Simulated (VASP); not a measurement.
# Pressure and energy of MgB2 (P6/mmm) within 6% of its equilibrium volume, in LDA

The usual rule of thumb treats a crystal near equilibrium as a spring: pressure is proportional to the volume change, and energy to its square. I test it here on MgB2, scaled evenly from about 6% below to 6% above its equilibrium volume. The answer matters whenever a small error in volume has to be turned into a pressure, or the reverse. The calculations are static LDA runs. Volume change is measured from the minimum of the fitted energy curve, energy per atom from the lowest point of the series, and pressure is positive when the cell pushes outwards.

## How the numbers were made

A cell from a diffraction database, relaxed at this level and then scaled evenly, fractional positions kept. VASP 6.6.1, plane waves with PAW, LDA, cutoff 420 eV, k mesh 10×10×8, no spin polarisation, no spin-orbit coupling, static lattice. A Birch-Murnaghan fit to the energies has its minimum at 9.15 Å³ per atom.

Notes on method and selection:

- The pressure is that of a finite plane-wave basis, so it need not vanish exactly at the minimum of the energy.
- Only series whose fit has its minimum inside the range and an error under 0.5 meV per atom are shown.
- Where rows or columns differ in functional or spin-orbit coupling, non-spherical gradient terms in the PAW spheres (LASPH) may be on in some and off in others.
- Runs that did not converge, have known faults or may not be shown are not listed, and runs on Ansatz's PAW sets soft_1 and soft_2 are kept to separate tables.

Columns:

- volume change (%): volume relative to the fitted equilibrium volume.
- pressure (GPa): pressure from the stress tensor (positive: compressed).
- energy (meV/atom): energy per atom above the lowest point of the series.

Input lines of one member:

```
PREC = Accurate
ENCUT = 420
EDIFF = 1E-06
NELM = 100
ISMEAR = 0
SIGMA = 0.05
LREAL = .FALSE.
ALGO = Normal
GGA = CA
NBANDS = 10
LORBIT = 11
KPAR = 2
ISIF = 2
```

Command (options for logging and memory left out): `mpirun -np 2 vasp_std`

## Computed values

| member | volume change (%) | pressure (GPa) | energy (meV/atom) |
| --- | --- | --- | --- |
| 8.60 Å³ | −6.01 | 11.56 | 19.02 |
| 8.78 Å³ | −4.01 | 7.34 | 8.20 |
| 8.97 Å³ | −2.01 | 3.49 | 2.00 |
| 9.15 Å³ | −0.01 | −0.01 | 0.00 |
| 9.33 Å³ | 1.99 | −3.21 | 1.84 |
| 9.52 Å³ | 3.99 | −6.12 | 7.17 |
| 9.70 Å³ | 5.99 | −8.78 | 15.68 |

pressure (GPa) against volume change (%):

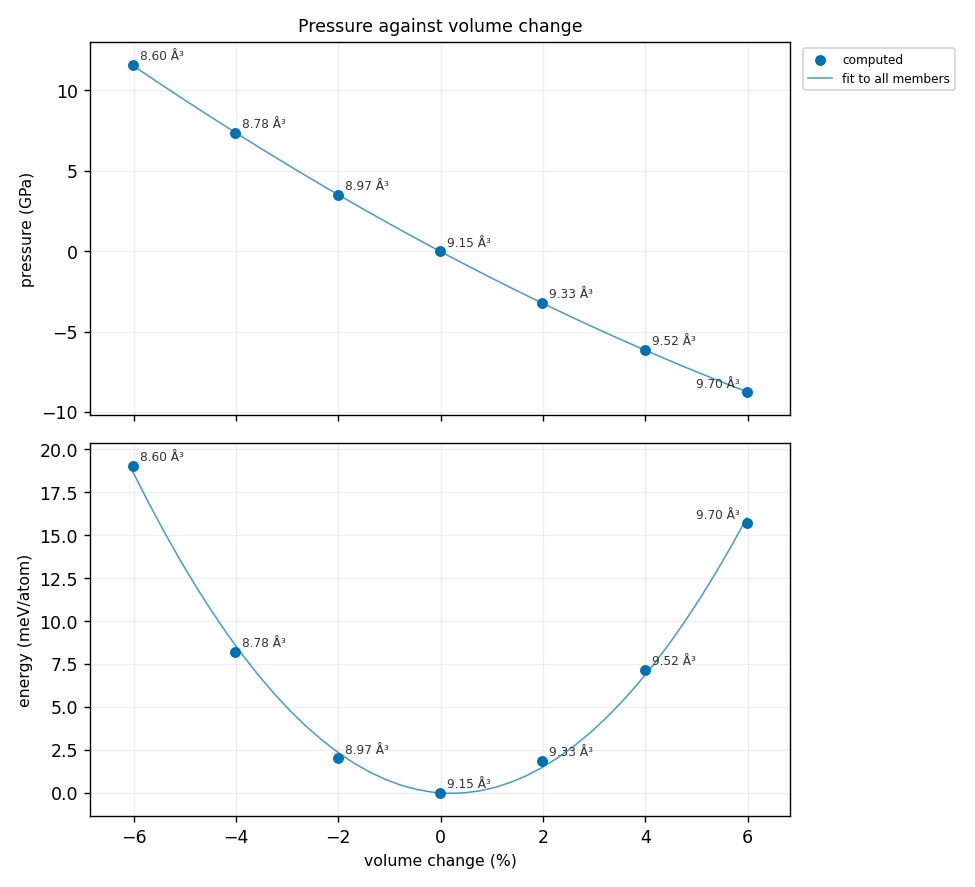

Least-squares fits to the whole series, with x = volume change (%); R² and errors in the fitted variable (y, or ln y where the fit is in ln y):

| y | members | fit | R² | rms residual | leave-one-out rms | the same for the mean of the others |
| --- | --- | --- | --- | --- | --- | --- |
| pressure (GPa) | 7 | y = −0.03071 − 1.689 x + 0.03899 x² | 1.00 | 0.028 | 0.075 | 7.9 |
| energy (meV/atom) | 7 | y = −0.01404 − 0.2089 x + 0.4821 x² | 1.00 | 0.33 | 0.89 | 7.9 |

## The trend and its physics

The pressure falls at every step, from 11.56 GPa in the smallest cell to −8.78 GPa in the largest, but the steps shrink. The first is worth (11.56 − 7.34) / 2.00 = 2.11 GPa per percent of volume, the last (8.78 − 6.12) / 2.00 = 1.33. The energy rises on both sides, and more steeply under compression. The spring therefore needs one correction.

I assume that the energy is smooth in the volume change x (in percent), that its minimum lies at x = 0, and that terms beyond the cubic can be dropped. With V₀ the equilibrium volume per atom,

E(x) = (V₀/100) · (b x²/2 − c x³/3).

Since V = V₀(1 + x/100), a change dx alters the volume by V₀ dx/100. The pressure is P = −dE/dV, so

P(x) = −b x + c x².

This holds along the path of fixed c/a, where P is the mean of the three normal stresses, even though, away from equilibrium, the in-plane stresses are larger in magnitude than the one along c.

Both parameters have a plain meaning. The bulk modulus is B = −V dP/dV = (100 + x)(b − 2c x), which is 100b at x = 0. Keeping the term linear in x and dividing by dP/dx = −b gives its pressure derivative, B′ = 200c/b − 1.

A perfectly straight pressure line, c = 0, would mean B′ = −1, a crystal that softens when squeezed. Ordinary solids stiffen, because the repulsion between overlapping electron shells and the kinetic energy of the confined electrons grow faster on compression than the attraction does. Hence c is positive, and the pressure lies above the straight line on both sides.

## Fixing and testing the model

I fix b and c on the pressures of 8.78 Å³ and 9.52 Å³, and keep the other members for the test. Dividing each pressure by −x gives

b + 4.01 c = 7.34 / 4.01 = 1.8304
b − 3.99 c = 6.12 / 3.99 = 1.5338

so c = (1.8304 − 1.5338) / 8.00 = 0.0371 GPa per percent squared, and b = 1.8304 − 4.01 × 0.0371 = 1.682 GPa per percent. This means B = 100 × 1.682 = 168 GPa and B′ = 200 × 0.0371 / 1.682 − 1 = 3.4.

The pressures of four other members follow, in GPa:

- 8.60 Å³: 1.682 × 6.01 + 0.0371 × 6.01² = 11.45; the table has 11.56.
- 8.97 Å³: 1.682 × 2.01 + 0.0371 × 2.01² = 3.53; the table has 3.49.
- 9.33 Å³: −1.682 × 1.99 + 0.0371 × 1.99² = −3.20; the table has −3.21.
- 9.70 Å³: −1.682 × 5.99 + 0.0371 × 5.99² = −8.74; the table has −8.78.

The energies are a stricter test, since they entered the model only through V₀, which sets the zero of x. One GPa·Å³ is 6.242 meV, so the prefactor V₀/100 is 9.15 × 6.242 / 100 = 0.5711. In meV per atom:

- 8.60 Å³: 0.5711 × (1.682 × 6.01² / 2 + 0.0371 × 6.01³ / 3) = 18.88; the table has 19.02.
- 9.70 Å³: 0.5711 × (1.682 × 5.99² / 2 − 0.0371 × 5.99³ / 3) = 15.72; the table has 15.68.

Two pressures and V₀ thus recover the energies at both ends of the series to within 0.14 meV per atom.

## Residuals

The bare spring fails first. Without c, the pressure at 8.60 Å³ would be 1.682 × 6.01 = 10.11 GPa, which is too low by 11.56 − 10.11 = 1.45 GPa. A parabola fails for the energy too: the printed quadratic fit puts its minimum at 0.2089 / (2 × 0.4821) = 0.22% instead of zero, because it has no cubic term to carry the asymmetry.

With c included, the largest miss in pressure is at 8.60 Å³, where the model is 0.11 GPa too low. At 9.70 Å³ it is 0.04 GPa too high. The part of these misses that changes sign with x, (0.11 + 0.04) / 2 = 0.08 GPa, is what a neglected cubic term in the pressure would give: the crystal stiffens a little faster on compression, and softens a little more slowly on expansion, than two parameters allow.

The remainder fits a small constant offset in the pressure. At 9.15 Å³ the model gives 1.682 × 0.01 = 0.02 GPa and the table −0.01, so the table lies slightly lower there. As the model is pinned to the table at 8.78 Å³ and 9.52 Å³, such an offset makes c a little too small, and this part of the miss changes sign towards the ends. A likely reason is that pressure and energy slope need not vanish together in a finite plane-wave basis, as the model assumes they do.

## What to take away

Within 6% of equilibrium, I can take 1.7 GPa per percent of volume for a quick estimate, and add the quadratic term beyond about 2%. Holding c/a fixed makes the crystal look somewhat stiffer than it would be under truly hydrostatic pressure at this level.

Two errors of the static LDA description outweigh the model's misses of about 0.1 GPa. LDA usually binds too strongly and makes the volume too small by a few percent, so at the real crystal's volume its pressure is too low by several GPa. Zero-point motion, strong for an element as light as boron, would add a positive pressure; leaving it out makes the static pressure too low as well, by a smaller amount.

[Logs are printed without paths, hosts, clocks, repeated set-up lines and the standing remarks that a program may print on its own settings, such as how far it seeks lower states.]
